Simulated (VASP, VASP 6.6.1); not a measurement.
# Lattice constants of black phosphorus from semilocal and van der Waals functionals: the soft axes miss a 1 % target

## The measurement

The reference is a compression study of black phosphorus by powder X-ray diffraction in a diamond anvil cell, with helium as the pressure medium, at room temperature: "Anisotropic thermo-mechanical response of layered hexagonal boron nitride and black phosphorus: application as a simultaneous pressure and temperature sensor" (2023, arXiv:2307.07533). The three lattice constants are the zero-pressure coefficients of fits to data between 0 and 5 GPa, polynomial for a and b and linear for c. They are therefore fit intercepts, not readings from a free-standing powder. We see no reason to distrust them at the level needed here: they agree with the accepted ambient values, and the separate structure refinement from which our starting cell derives differs from them by only 0.002 Å in a and 0.004 Å in b and c.

| compared with | measured | source's wording or label | T (K) | method |
| --- | --- | --- | --- | --- |
| lattice constant a of the conventional cell (Å) | 3.314 ± 0.001 | a at zero pressure, from polynomial fit to 0-5 GPa data | room temperature | powder XRD in diamond anvil cell |
| lattice constant b of the conventional cell (Å) | 10.48 ± 0.01 | b (normal to layers) at zero pressure, from polynomial fit to 0-5 GPa data | room temperature | powder XRD in diamond anvil cell |
| lattice constant c of the conventional cell (Å) | 4.375 ± 0.002 | c at zero pressure, from linear fit to 0-5 GPa data | room temperature | powder XRD in diamond anvil cell |

Conditions are those given with the value in the passage it was taken from; "not stated" means there, and the paper may say more elsewhere. The values are a selection: others may have been left out beforehand as unlike or outlying.

## Model and target

We look for the cheapest level of theory that gives each of the three lattice constants of black phosphorus within 1 % of experiment. The axes test different things. Along a, the zigzag direction, covalent bonds hold the puckered layer stiff. Along c, the armchair direction, the layer can fold and unfold at little cost in energy. Along b the layers are stacked, and dispersion forces matter. A volume alone could hide opposite errors in b and c, so each axis must pass by itself.

One per cent amounts to roughly 0.03 Å in a, 0.10 Å in b and 0.04 Å in c. That is well above the fit uncertainties, yet small enough to expose a poor description of the interlayer binding, which can shift a soft axis by several per cent. The calculations treat static nuclei at zero temperature, whereas the measurement was made at room temperature. We expect thermal and zero-point motion to lengthen the soft axes by some tenths of a per cent, so a sound static cell should come out slightly small there.

The model is the four-atom primitive cell, with cell and atoms relaxed under the Cmce symmetry from the refined structure stretched by 3 % in volume. We begin with a semilocal functional at a low cutoff, settle the basis, and then add dispersion or change the functional as the errors on the individual axes require. Semilocal functionals may close the narrow gap of this crystal, while the smearing is narrow and the mesh is of a kind meant for insulators, so the k mesh needs a test as well.

System: P; Cmce (No. 64), 4 atoms in the cell; conventional a = 3.316, b = 10.484, c = 4.379 A, from a published structure refinement (COD).

On the selection of runs and values: 13 further cited values are not listed: repeats, values quoted from earlier work, more than five for one quantity or six quantities, or quantities that fewer than three runs give.

## 1. PBEsol at two cutoffs

PBEsol is inexpensive and usually gives good bond lengths in solids, which should serve the a axis. It contains no explicit dispersion term, so b is the axis most at risk. We run it at 260 eV and at 450 eV on the same k mesh: the first is the lightest sensible setting, and the second shows whether the soft axes tolerate so small a basis in a variable-cell relaxation.

**Run 1.** VASP 6.6.1: PBEsol; 260 eV, 8x6x8 k mesh; cell and atoms relaxed, relaxed twice.

Key lines of the input:
```
ALGO = Normal
EDIFF = 1E-06
EDIFFG = -0.006
ENCUT = 260
GGA = PS
IBRION = 2
ISIF = 3
ISMEAR = 0
NBANDS = 16
NELM = 100
NSW = 50
PREC = Accurate
SIGMA = 0.03
KPOINTS: Gamma, 8 6 8
PAW data sets: P (PBE 64)
```

Command:
```
mpirun -np 8 vasp_std
```

Selected lines of the output:
```
  16 F= -.23019415E+02 E0= -.23019326E+02  d E =-.174640E-04
  17 F= -.23019434E+02 E0= -.23019346E+02  d E =-.369890E-04
  18 F= -.23019443E+02 E0= -.23019355E+02  d E =-.925272E-05
  19 F= -.23019449E+02 E0= -.23019361E+02  d E =-.147175E-04
[second pass]
  12 F= -.22986685E+02 E0= -.22986597E+02  d E =-.945239E-05
 reached required accuracy - stopping structural energy minimisation
  external PRESSURE =       0.0599385 kB  Pullay stress =       0.0000000 kB
  volume of cell :       69.57
      direct lattice vectors                 reciprocal lattice vectors
     3.320101176 -0.000000000  0.000000000     0.301195640  0.098652448  0.000000000
     0.000000000 -0.000000000  4.134382529     0.000000000  0.000000000  0.241874087
     1.660050588 -5.068297954  0.000000000    -0.000000000 -0.197304896 -0.000000000
```

Converged; 2 min on 8 cores of AMD EPYC 7R43 64, shared host.

**Run 2.** VASP 6.6.1: PBEsol; 450 eV, 8x6x8 k mesh; cell and atoms relaxed, relaxed twice.

Key lines of the input, as changed from run 1:
```diff
- ENCUT = 260
+ ENCUT = 450
```

Selected lines of the output:
```
  21 F= -.23034344E+02 E0= -.23034254E+02  d E =-.987239E-05
  external PRESSURE =       0.1981518 kB  Pullay stress =       0.0000000 kB
  volume of cell :       71.37
```

Converged; 3.7 min of wall time.

| quantity | run 1 | run 2 | measured |
| --- | --- | --- | --- |
| lattice constant a of the conventional cell (Å) | 3.320 | 3.314 | 3.314 ± 0.001 |
| lattice constant b of the conventional cell (Å) | 10.137 | 10.261 | 10.48 ± 0.01 |
| lattice constant c of the conventional cell (Å) | 4.134 | 4.197 | 4.375 ± 0.002 |
| volume of the conventional cell (Å³) | 139.14 | 142.74 |  |
| space group at the end | Cmce | Cmce |  |
| pressure left at the end (GPa) | 0.0060 | 0.0198 |  |

At 450 eV a agrees with the measured value, but b is 2.1 % and c 4.1 % too short, so PBEsol misses the target on both soft axes. We had thought b most at risk because the functional has no dispersion term. Instead the larger relative error lies within the layer, along the armchair axis, and both errors are contractions. Room-temperature expansion has the right sign to account for part of this, but not the size.

The cutoff is no detail here. Going from 260 to 450 eV lengthens b by 0.124 Å and c by 0.063 Å, while a changes by only 0.006 Å. The lower cutoff is therefore unfit for this crystal, even though its relaxation ended with almost no residual pressure.

## 2. Cutoff and k mesh for PBEsol

With so strong a response to the cutoff, we want to know whether 450 eV is enough before we compare functionals. One run raises the cutoff to 600 eV on the same mesh, and another keeps 450 eV and refines the mesh to 10×8×10, which matters because the free energy in runs 1 and 2 differs from its zero-smearing value, a sign of a closed or nearly closed gap. We expect both changes to be small beside the 4.1 % error in c. If they are, the contraction belongs to the functional or the potential and not to the sampling.

**Run 3.** VASP 6.6.1: PBEsol; 600 eV, 8x6x8 k mesh; cell and atoms relaxed, relaxed twice.

Key lines of the input, as changed from run 1:
```diff
- ENCUT = 260
+ ENCUT = 600
```

Selected lines of the output:
```
  volume of cell :       71.46
```

Converged; 6.2 min of wall time.

**Run 4.** VASP 6.6.1: PBEsol; 450 eV, 10x8x10 k mesh; cell and atoms relaxed, relaxed twice.

Key lines of the input, as changed from run 2:
```diff
- KPOINTS: Gamma, 8 6 8
+ KPOINTS: Gamma, 10 8 10
```

Selected lines of the output:
```
  volume of cell :       71.92
```

Converged; 5.4 min of wall time.

| quantity | run 3 | run 4 | measured |
| --- | --- | --- | --- |
| lattice constant a of the conventional cell (Å) | 3.315 | 3.315 | 3.314 ± 0.001 |
| lattice constant b of the conventional cell (Å) | 10.266 | 10.317 | 10.48 ± 0.01 |
| lattice constant c of the conventional cell (Å) | 4.200 | 4.205 | 4.375 ± 0.002 |
| volume of the conventional cell (Å³) | 142.92 | 143.85 |  |
| space group at the end | Cmce | Cmce |  |
| pressure left at the end (GPa) | −0.0076 | 0.0046 |  |

Raising the cutoff from 450 to 600 eV changes b by 0.005 Å and c by 0.003 Å, so 450 eV is sufficient for PBEsol at the 1 % target. Both changes are small beside the error in c, as expected, but the k mesh matters more than the cutoff: the finer one lengthens b by 0.056 Å, about half the tolerance on that axis, and c by 0.008 Å. Two meshes do not establish convergence of b, and a result near its limit on the coarser mesh will need caution.

The verdict on PBEsol does not hinge on this. On the finer mesh b is still 1.6 % and c 3.9 % too short, and the error in c is far larger than any change seen in these two tests.

## 3. PBE at the same cost

The soft axes need to lengthen, and an attractive dispersion correction on top of PBEsol would be expected to pull the layers closer still. We therefore change the gradient functional first. PBE binds more weakly than PBEsol and belongs to the same class of cost. We expect it to lengthen c towards experiment, but to overshoot b, since it too has no dispersion term to hold the layers together. The settings are 450 eV and the 8×6×8 mesh, so the comparison is with the PBEsol run at those settings.

**Run 5.** VASP 6.6.1: PBE; 450 eV, 8x6x8 k mesh; cell and atoms relaxed, relaxed twice.

Key lines of the input, as changed from run 2:
```diff
- GGA = PS
+ GGA = PE
```

Selected lines of the output:
```
  28 F= -.21490378E+02 E0= -.21490378E+02  d E =-.519099E-04
  volume of cell :       85.16
      direct lattice vectors                 reciprocal lattice vectors
     0.000000000 -0.000000000  4.563322657     0.000000000  0.000000000  0.219138570
```

Converged; 4.4 min of wall time.

| quantity | run 5 | measured | deviation |
| --- | --- | --- | --- |
| lattice constant a of the conventional cell (Å) | 3.307 | 3.314 ± 0.001 | −0.007 (−0.2 %) |
| lattice constant b of the conventional cell (Å) | 11.286 | 10.48 ± 0.01 | +0.806 (+7.7 %) |
| lattice constant c of the conventional cell (Å) | 4.563 | 4.375 ± 0.002 | +0.188 (+4.3 %) |
| volume of the conventional cell (Å³) | 170.32 |  |  |
| space group at the end | Cmce |  |  |
| pressure left at the end (GPa) | 0.0139 |  |  |

PBE does lengthen c, but far past the measured value: c is now 4.3 % too long and b 7.7 % too long, while a stays within 0.2 %. Thermal expansion would widen both misses. The excess in b is what we expected of a functional without dispersion.

In PBEsol b and c are both too short, and in PBE both are too long. This suggests that the pucker of the layer responds to how strongly neighbouring layers bind, so that c cannot be treated as a purely intralayer quantity. The electronic state differs as well. In PBE the free energy and its zero-smearing value coincide, so no levels on the mesh are partly filled, whereas in PBEsol they differ slightly. The mesh sensitivity found for PBEsol therefore need not carry over to a functional that gives a larger cell.

## 4. r2SCAN without a dispersion term

We now move up to a meta-GGA. r2SCAN captures part of the medium-range attraction that PBE lacks, and it usually describes covalent bonds well. We expect b and c to fall between the PBEsol and PBE values, with b probably still somewhat long because the long-range part of dispersion is absent. This run will also serve as the baseline for judging a non-local correlation term, which costs more. Cutoff and mesh stay as they were.

**Run 6.** VASP 6.6.1: r2SCAN; 450 eV, 8x6x8 k mesh; cell and atoms relaxed, relaxed twice, LASPH on.

Key lines of the input, as changed from run 2:
```diff
- GGA = PS
+ LASPH = .TRUE.
+ METAGGA = R2SCAN
```

Selected lines of the output:
```
  volume of cell :       82.47
     0.000000000  0.000000000  4.549707616     0.000000000  0.000000000  0.219794344
```

Converged; 18 min of wall time.

| quantity | run 6 | measured | deviation |
| --- | --- | --- | --- |
| lattice constant a of the conventional cell (Å) | 3.294 | 3.314 ± 0.001 | −0.020 (−0.6 %) |
| lattice constant b of the conventional cell (Å) | 11.006 | 10.48 ± 0.01 | +0.526 (+5.0 %) |
| lattice constant c of the conventional cell (Å) | 4.550 | 4.375 ± 0.002 | +0.175 (+4.0 %) |
| volume of the conventional cell (Å³) | 164.94 |  |  |
| space group at the end | Cmce |  |  |
| pressure left at the end (GPa) | 0.0035 |  |  |

With r2SCAN b and c do fall between the PBEsol and PBE values, but b is still 5.0 % and c 4.0 % too long. Relative to PBE, b shortens by 0.280 Å and c by only 0.013 Å, so the change of functional helps the stacking far more than the armchair axis, as added medium-range attraction between the layers would. The a axis is 0.6 % short, within the target but further from experiment than with either gradient functional. The run took 18 minutes against 4.4 for PBE, and the extra effort has not brought either soft axis near its limit.

## 5. Two functionals with non-local correlation

Both functionals that leave b too long lack long-range dispersion, so we now include it through a non-local correlation term, in two ways. Adding rVV10 to r2SCAN tests the missing term directly against the run just made. vdW-DF-cx joins non-local correlation to exchange of the gradient type and does without the meta-GGA ingredients. We expect both to bring b down strongly. The harder question is c, which must shorten by about 4 % from its r2SCAN value, and can do so only if the pucker follows the interlayer binding as the earlier runs suggested.

**Run 7.** VASP 6.6.1: vdW-DF-cx; 450 eV, 8x6x8 k mesh; cell and atoms relaxed, relaxed twice, LASPH on.

Key lines of the input, as changed from run 6:
```diff
+ AGGAC = 0
+ GGA = CX
- METAGGA = R2SCAN
+ LUSE_VDW = .TRUE.
```

Selected lines of the output:
```
[second pass]
   1 F= -.16740631E+02 E0= -.16740504E+02  d E =-.167406E+02
 reached required accuracy - stopping structural energy minimisation
     0.000000000  0.000000000  4.248333025     0.000000000  0.000000000  0.235386443
```

Converged; 14 min of wall time.

**Run 8.** VASP 6.6.1: r2SCAN + rVV10; 450 eV, 8x6x8 k mesh; cell and atoms relaxed, LASPH on.

Key lines of the input, as changed from run 6:
```diff
+ BPARAM = 11.95
+ CPARAM = 0.0093
+ IVDW_NL = 2
+ LUSE_VDW = .TRUE.
```

Selected lines of the output:
```
DAV:   3    -0.355862540640E+02    0.13900E-04   -0.27977E-05  3424   0.309E-02    0.769E-03
  17 F= -.35586253E+02 E0= -.35586213E+02  d E =-.656129E-04
     0.000000000 -0.000000000  4.464654942     0.000000000 -0.000000000  0.223981475
```

Converged; 23 min of wall time.

| quantity | run 7 | run 8 | measured |
| --- | --- | --- | --- |
| lattice constant a of the conventional cell (Å) | 3.333 | 3.297 | 3.314 ± 0.001 |
| lattice constant b of the conventional cell (Å) | 10.297 | 10.670 | 10.48 ± 0.01 |
| lattice constant c of the conventional cell (Å) | 4.248 | 4.465 | 4.375 ± 0.002 |
| volume of the conventional cell (Å³) | 145.78 | 157.07 |  |
| space group at the end | Cmce | Cmce |  |
| pressure left at the end (GPa) | 0.0162 | −0.0092 |  |

Neither functional meets the target. Both keep a within 0.6 % of experiment, but vdW-DF-cx leaves b about 1.7 % and c about 2.9 % shorter than measured, while r2SCAN + rVV10 leaves them about 1.8 % and 2.1 % too long.

The comparison with plain r2SCAN isolates the non-local term, except that run 8 had one relaxation pass and run 6 two. Adding rVV10 shortens b by 0.336 Å and c by 0.085 Å and hardly changes a. The armchair axis therefore responds to non-local correlation. This fits the coupling to interlayer binding that we suspected but does not prove it, since the term also acts within a layer. Only about half of the excess in c is removed.

Both runs used the 8×6×8 mesh, and in both the free energy differs slightly from its zero-smearing value, a sign of partly filled levels like those in PBEsol. A finer mesh for either functional is not shown in this report, so the exact size of their errors, and which of the two comes closer, remains open.

## Collected results

| run | settings | Q1 | Q2 | Q3 | mean abs. dev. of these columns (%) | cost |
| --- | --- | --- | --- | --- | --- | --- |
| 1 | PBEsol, 260 eV, 8x6x8 k mesh, relaxed twice | 3.320 | 10.137 | 4.134 | 3.0 | 16 core-min |
| 2 | PBEsol, 450 eV, 8x6x8 k mesh, relaxed twice | 3.314 | 10.261 | 4.197 | 2.1 | 29 core-min |
| 3 | PBEsol, 600 eV, 8x6x8 k mesh, relaxed twice | 3.315 | 10.266 | 4.200 | 2.0 | 50 core-min |
| 4 | PBEsol, 450 eV, 10x8x10 k mesh, relaxed twice | 3.315 | 10.317 | 4.205 | 1.8 | 43 core-min |
| 5 | PBE, 450 eV, 8x6x8 k mesh, relaxed twice | 3.307 | 11.286 | 4.563 | 4.1 | 35 core-min |
| 6 | r2SCAN, 450 eV, 8x6x8 k mesh, relaxed twice, LASPH on | 3.294 | 11.006 | 4.550 | 3.2 | 2.5 core-h |
| 7 | vdW-DF-cx, 450 eV, 8x6x8 k mesh, relaxed twice, LASPH on | 3.333 | 10.297 | 4.248 | 1.7 | 1.8 core-h |
| 8 | r2SCAN + rVV10, 450 eV, 8x6x8 k mesh, LASPH on | 3.297 | 10.670 | 4.465 | 1.5 | 3.1 core-h |
|  | measured | 3.314 ± 0.001 | 10.48 ± 0.01 | 4.375 ± 0.002 |  |  |

Q1: lattice constant a of the conventional cell (Å). Q2: lattice constant b of the conventional cell (Å). Q3: lattice constant c of the conventional cell (Å).

The runs in order, against the measurement:

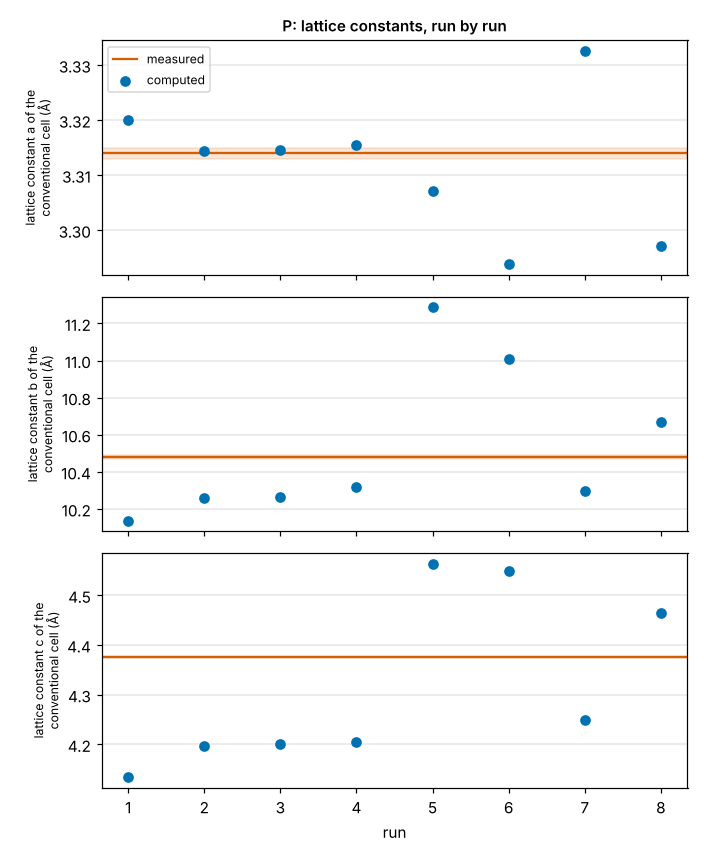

Further runs on the same system, made beside this series (convergence steps with loose settings among them):

| further | settings | Q1 | Q2 | Q3 | mean abs. dev. of these columns (%) | cost |
| --- | --- | --- | --- | --- | --- | --- |
| F1 | TPSS, 450 eV, 8x6x8 k mesh, LASPH on | 3.318 | 10.614 | 4.389 | 0.6 | 59 core-min |
| F2 | PBEsol + D3(BJ), 450 eV, 8x6x8 k mesh, relaxed twice | 3.335 | 9.932 | 3.824 | 6.2 | 34 core-min |
| F3 | LDA, 450 eV, 8x6x8 k mesh, relaxed twice | 3.301 | 10.138 | 4.145 | 3.0 | 21 core-min |
| F4 | PBEsol, 450 eV, 4x3x4 k mesh, relaxed twice | 3.449 | 9.948 | 3.771 | 7.7 | 10 core-min |
|  | measured | 3.314 ± 0.001 | 10.48 ± 0.01 | 4.375 ± 0.002 |  |  |

Q1: lattice constant a of the conventional cell (Å). Q2: lattice constant b of the conventional cell (Å). Q3: lattice constant c of the conventional cell (Å).

## Outcome

No level in this report meets the target of 1 % on every axis. All the functionals give a within 1 % on the 8×6×8 mesh; the soft axes decide the outcome. Of the levels in our main series, r2SCAN + rVV10 has the smallest mean deviation, at 3.1 core-hours, but b and c remain about 1.8 % and 2.1 % too long.

A further run with TPSS comes nearest, at 59 core-minutes. It gives a and c within about 0.3 % and misses narrowly on b, which is about 1.3 % too long. The size of that miss is not firm: refining the mesh lengthened b by about 0.06 Å in PBEsol, a shift that would widen the miss if it carried over, and such a test for TPSS is not shown in this report. The run also had a single relaxation pass, and its b ends close to the stretched start value (about 1 % above the refined b, if the stretch is uniform), which calls for caution on so soft an axis. Nor does TPSS contain long-range dispersion, so its closeness may rest on compensating errors or on a relaxation that stopped early on a flat energy surface, and it is no evidence that TPSS describes the interlayer binding.

The most useful comparison was r2SCAN with and without rVV10: non-local correlation shortens both soft axes. Dispersion does not help every functional, however. D3(BJ) on PBEsol, which already binds too tightly, leaves c about 13 % too short. The 260 eV run served only to rule out that cutoff, and a 4×3×4 mesh distorts even the stiff a axis.

Thermal and zero-point expansion, perhaps some tenths of a per cent, would reduce the contractions found with PBEsol and vdW-DF-cx without removing them, and would widen the excesses of TPSS and r2SCAN + rVV10 in b and c. What remains we ascribe mainly to the balance between exchange and interlayer attraction, though mesh and cutoff tests for functionals other than PBEsol are not shown in this report. PBE with a dispersion correction would be the natural next test, because PBE errs towards long b and c.

[Logs are printed without paths, hosts, clocks, repeated set-up lines and the standing remarks that a program may print on its own settings, such as how far it seeks lower states.]

[The runs shown are a pick from a larger set of finished runs; failed, doubtful and other runs were left out of it ahead of writing. So were measured values far from every level or from commonly accepted values, and agreement can look better than it is. Lines of input and output are excerpts and may be shortened.]
